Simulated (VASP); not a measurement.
# Relaxed cell volume of ferromagnetic CrO2 (P4_2/mnm) from LDA to r2SCAN, with and without dispersion terms

The usual rule of thumb says that LDA makes crystals too small, that PBE makes them too large, and that a dispersion term shrinks the cell. CrO2 in the rutile structure puts the rule to the test on a ferromagnetic metal of interest for spin-polarised electrodes. Its volume matters because the Cr–O distances set the width of the d bands and the strength of the magnetic exchange. Cell and atoms are relaxed at each level from ferromagnetic order, without a Hubbard term, and the volume is compared with the diffraction cell of 9.50 Å³ per atom. A negative error means that the calculated cell is too small. The diffraction cell includes zero-point and thermal expansion, so an exact static calculation should give an error of about −0.5 to −2 %, not zero.

## Calculations

The start is the cell of a diffraction database, 9.50 Å³ per atom, whose temperature is that of the entry, mostly ambient. VASP 6.6.1, plane waves with PAW, cutoff 560 eV; cell and atoms fully relaxed at zero pressure at each level, static lattice, collinear spin, no spin-orbit coupling. All ran on Intel(R) Xeon(R) 6975P-C (Granite Rapids), shared with other work, so times are rough. All levels use the PAW data sets made with PBE.

Notes on method and selection:

- The diffraction cell holds zero-point and thermal expansion, typically 0.5 to 2 % in volume at room temperature, which a static relaxation lacks.
- Crystals whose PBE volume lies more than 1.5 % under or 25 % over the diffraction cell, or whose cell differs by over 0.3 % from another measurement, were left out.
- Non-spherical gradient terms in the PAW spheres (LASPH) were on in all rows.
- Runs that did not converge, have known faults or may not be shown are not listed, and runs on Ansatz's PAW sets soft_1 and soft_2 are kept to separate tables.

Columns:

- volume error (%): relaxed volume relative to the diffraction cell.
- volume (Å³/atom): relaxed volume per atom.
- cost per step (core-s): processor time per ionic step of the relaxation.

## Results

| member | volume error (%) | volume (Å³/atom) | cost per step (core-s) |
| --- | --- | --- | --- |
| LDA | −4.80 | 9.046 | 29 |
| AM05 | −2.00 | 9.312 | 42 |
| PBE + D3(BJ) | ? | ? | 41 |
| PBEsol | −2.07 | 9.306 | 35 |
| r2SCAN + rVV10 | −1.17 | 9.391 | 430 |
| PBE | 1.46 | 9.641 | 44 |
| r2SCAN | −0.54 | 9.451 | 170 |
| revPBE + D3(BJ) | 0.45 | 9.545 | 40 |

Cells marked ? are withheld until the estimate has been made.

volume error (%) by member, members shown:

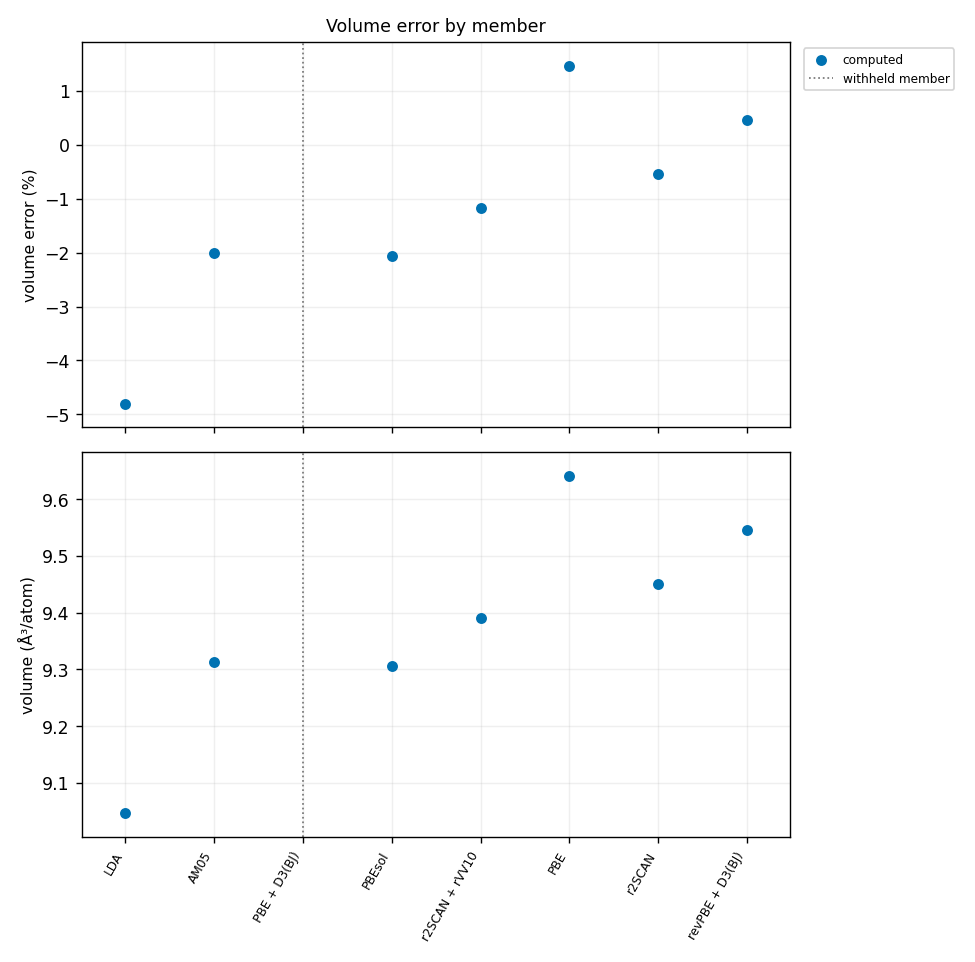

## What drives the series

The first two parts of the rule hold: LDA lies at −4.80 % and PBE at 1.46 %, a span of 6.26 percentage points. PBEsol and AM05 fall between them, and the 0.07 points that separate these two carry no meaning.

The order of LDA, PBEsol and PBE follows from the exchange energy. For small reduced density gradients $s$ it is enhanced by $F_x \approx 1 + \mu s^2$, with $\mu$ zero in LDA, roughly 0.12 in PBEsol and roughly 0.22 in PBE. Moving atoms apart leaves more of the density in regions of strong gradient, so a larger $\mu$ favours a larger cell. PBEsol covers 2.73 / 6.26 = 0.44 of the way from LDA to PBE, near the ratio of the coefficients, 0.12 / 0.22 = 0.55. Exact agreement is not expected, because the correlation part changes too.

The effect of dispersion at a fixed parent functional is seen in one pair. Adding rVV10 to r2SCAN moves the error from −0.54 to −1.17 %, a contraction of 0.63 points or 0.060 Å³ per atom. The sign is that of an added attraction between ions, and the size is modest because r2SCAN already describes part of the attraction at medium range. The step costs 430 / 170 = 2.5 times as much processor time.

Of the seven levels shown so far, revPBE + D3(BJ) is nearest to the raw diffraction cell, at 0.45 %, and LDA is farthest. Allowing for expansion changes the verdict at the top: both r2SCAN rows then lie inside the expected window, AM05 and PBEsol sit at its lower edge, and revPBE + D3(BJ) is too large by about 1 to 2.5 points. LDA remains the worst level over most of that window; only towards its lower edge, −2 %, does PBE lie farther off. Because crystals with a PBE volume well under experiment were left out of the selection, the positive error of PBE here should not be read as typical of oxides.

## An estimate before looking

Plain estimates from the members shown:

- PBE + D3(BJ), mean of the 7 members shown: −1.24 %, standard deviation 1.9

The mean of the seven members, −1.24 % with a standard deviation of 1.9, mixes functionals with very different exchange and ignores the known parent, PBE at 1.46 %. The closest relative is revPBE + D3(BJ), which has the same form of dispersion term and an exchange functional that differs from PBE in one parameter.

Without dispersion, revPBE generally gives larger cells than PBE. The damping of D3(BJ) is fitted separately for each functional, so the more repulsive parent receives the stronger attraction, and the two corrected functionals should end close together. The estimate therefore takes over the revPBE + D3(BJ) error of 0.45 % without a further shift.

This implies a contraction of PBE by 1.46 − 0.45 = 1.01 points. That is more than the 0.63 points which rVV10 takes from r2SCAN, as it should be for a parent that lacks most of the medium-range attraction.

With a single D3 row to draw on, the route cannot be tried on another member and has no scatter of its own. The error bar is set instead to the one dispersion shift seen at a fixed parent, 0.63 points, as the scale on which two corrected functionals may fail to coincide. Rounded, the estimate is 0.5 ± 0.6 %.

**Committed estimate, PBE + D3(BJ): volume error = 0.5 ± 0.6 %.**

## Check

| member | volume error (%) | volume (Å³/atom) | cost per step (core-s) |
| --- | --- | --- | --- |
| PBE + D3(BJ) | 0.08 | 9.510 | 41 |

| member | estimate | volume error (%) | computed | estimate − computed | miss in error bars |
| --- | --- | --- | --- | --- | --- |
| PBE + D3(BJ) | committed | 0.50 | 0.08 | +0.42 | 0.7 |
| PBE + D3(BJ) | mean | −1.24 | 0.08 | −1.32 |  |

volume error (%) by member:

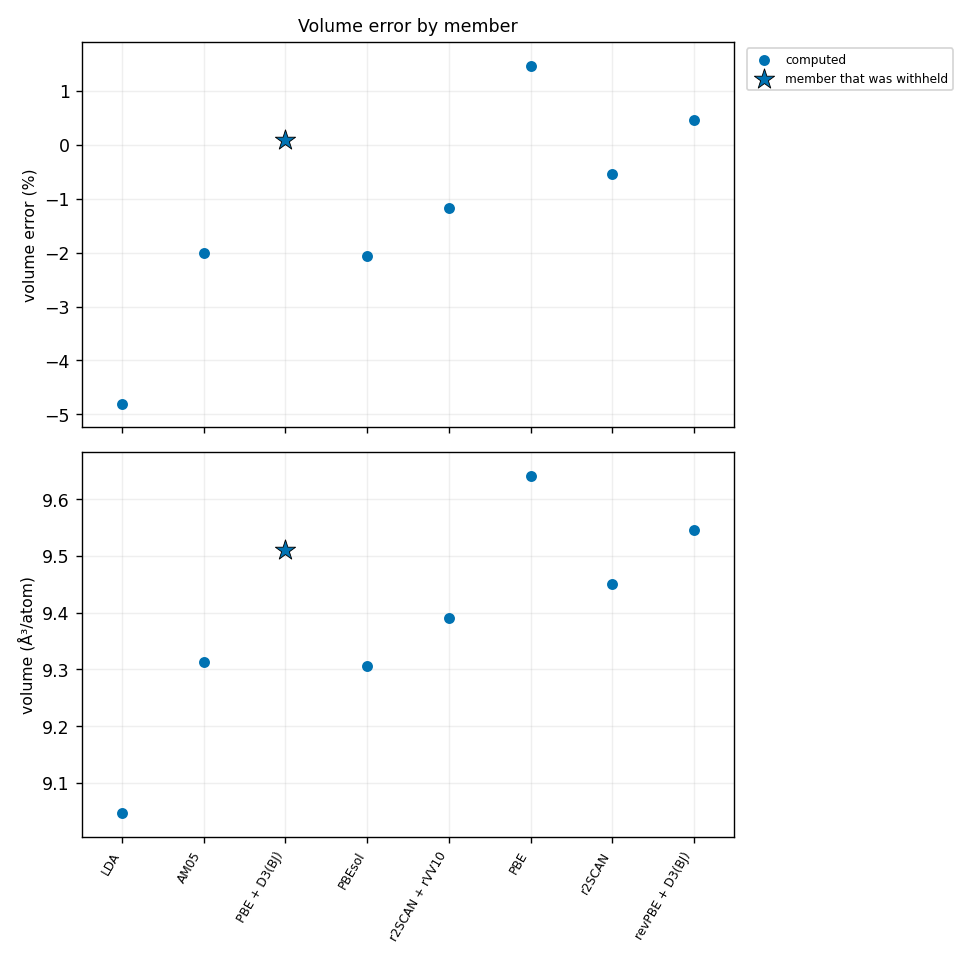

The estimate of 0.5 ± 0.6 % holds: PBE + D3(BJ) comes out at 0.08 %, which is 0.42 points lower and inside the error bar. The mean of the other seven members misses by 1.32 points.

The argument that the two D3-corrected functionals end close together held to 0.45 − 0.08 = 0.37 points. What failed was the assumption that the separately fitted damping removes the whole difference between the parents. The remaining gap has the sign expected from exchange, since revPBE favours larger cells than PBE.

The dispersion term contracts the PBE cell by 1.46 − 0.08 = 1.38 points, against the 1.01 points implied by the estimate. This is 1.38 / 0.63 = 2.2 times the contraction that rVV10 gives r2SCAN. A parent with less medium-range attraction of its own would act in this direction, but the two dispersion models also differ in form, so the ratio does not measure the parents alone.

## Where the trend breaks

LDA stands farthest from the rest. Its error of −4.80 % lies about 3.7 points below the mean of all eight members, roughly −1.1 %, and 2.73 points below the next smallest cell, that of PBEsol. The likeliest reason is the well-known overbinding of LDA, which has no gradient term to favour the more uneven density of a stretched bond.

PBE is the farthest on the other side, 2.5 points above the mean. Its gradient enhancement of exchange is stronger than suits the slowly varying density of many solids, and here no dispersion term offsets it. PBEsol, with the weaker enhancement, gives a cell 3.53 points smaller. Both departures fit the known systematic tendencies of these functionals.

## Time and accuracy

An ionic step takes 29 to 44 core-s with LDA and the gradient-corrected functionals, and differences within that group may be no more than scatter on shared machines. D3(BJ) adds no visible cost to PBE, yet it moves the volume by 1.38 points. r2SCAN needs 170 / 44 = 3.9 times the time of PBE, and with rVV10 the factor is 430 / 44 = 9.8. The extra time buys a volume inside the window expected of a static cell. AM05 and PBEsol reach the lower edge of that window at the price of an ordinary gradient-corrected run, so for the volume alone the gain from r2SCAN is modest.

## Rules of thumb and their limits

For ferromagnetic CrO2 without a Hubbard term, both dispersion terms tested on a fixed parent shrink the cell, by 0.63 and 1.38 points. Taking one D3-corrected functional for the other worked to 0.37 points, against a scatter of 1.9 points about the mean, but this is a single test.

In terms of lengths, a third of the volume error gives the mean error of a cell edge: −4.80 / 3 = −1.6 % for LDA and 1.46 / 3 = 0.5 % for PBE.

PBE + D3(BJ) is nearest to the raw diffraction cell, but thermal and zero-point expansion would still enlarge its static cell by roughly 0.5 to 2 %. A Hubbard term on Cr d would probably also enlarge the cell, because it weakens the covalent Cr–O bond. Either effect can reorder the levels that lie closest to experiment.
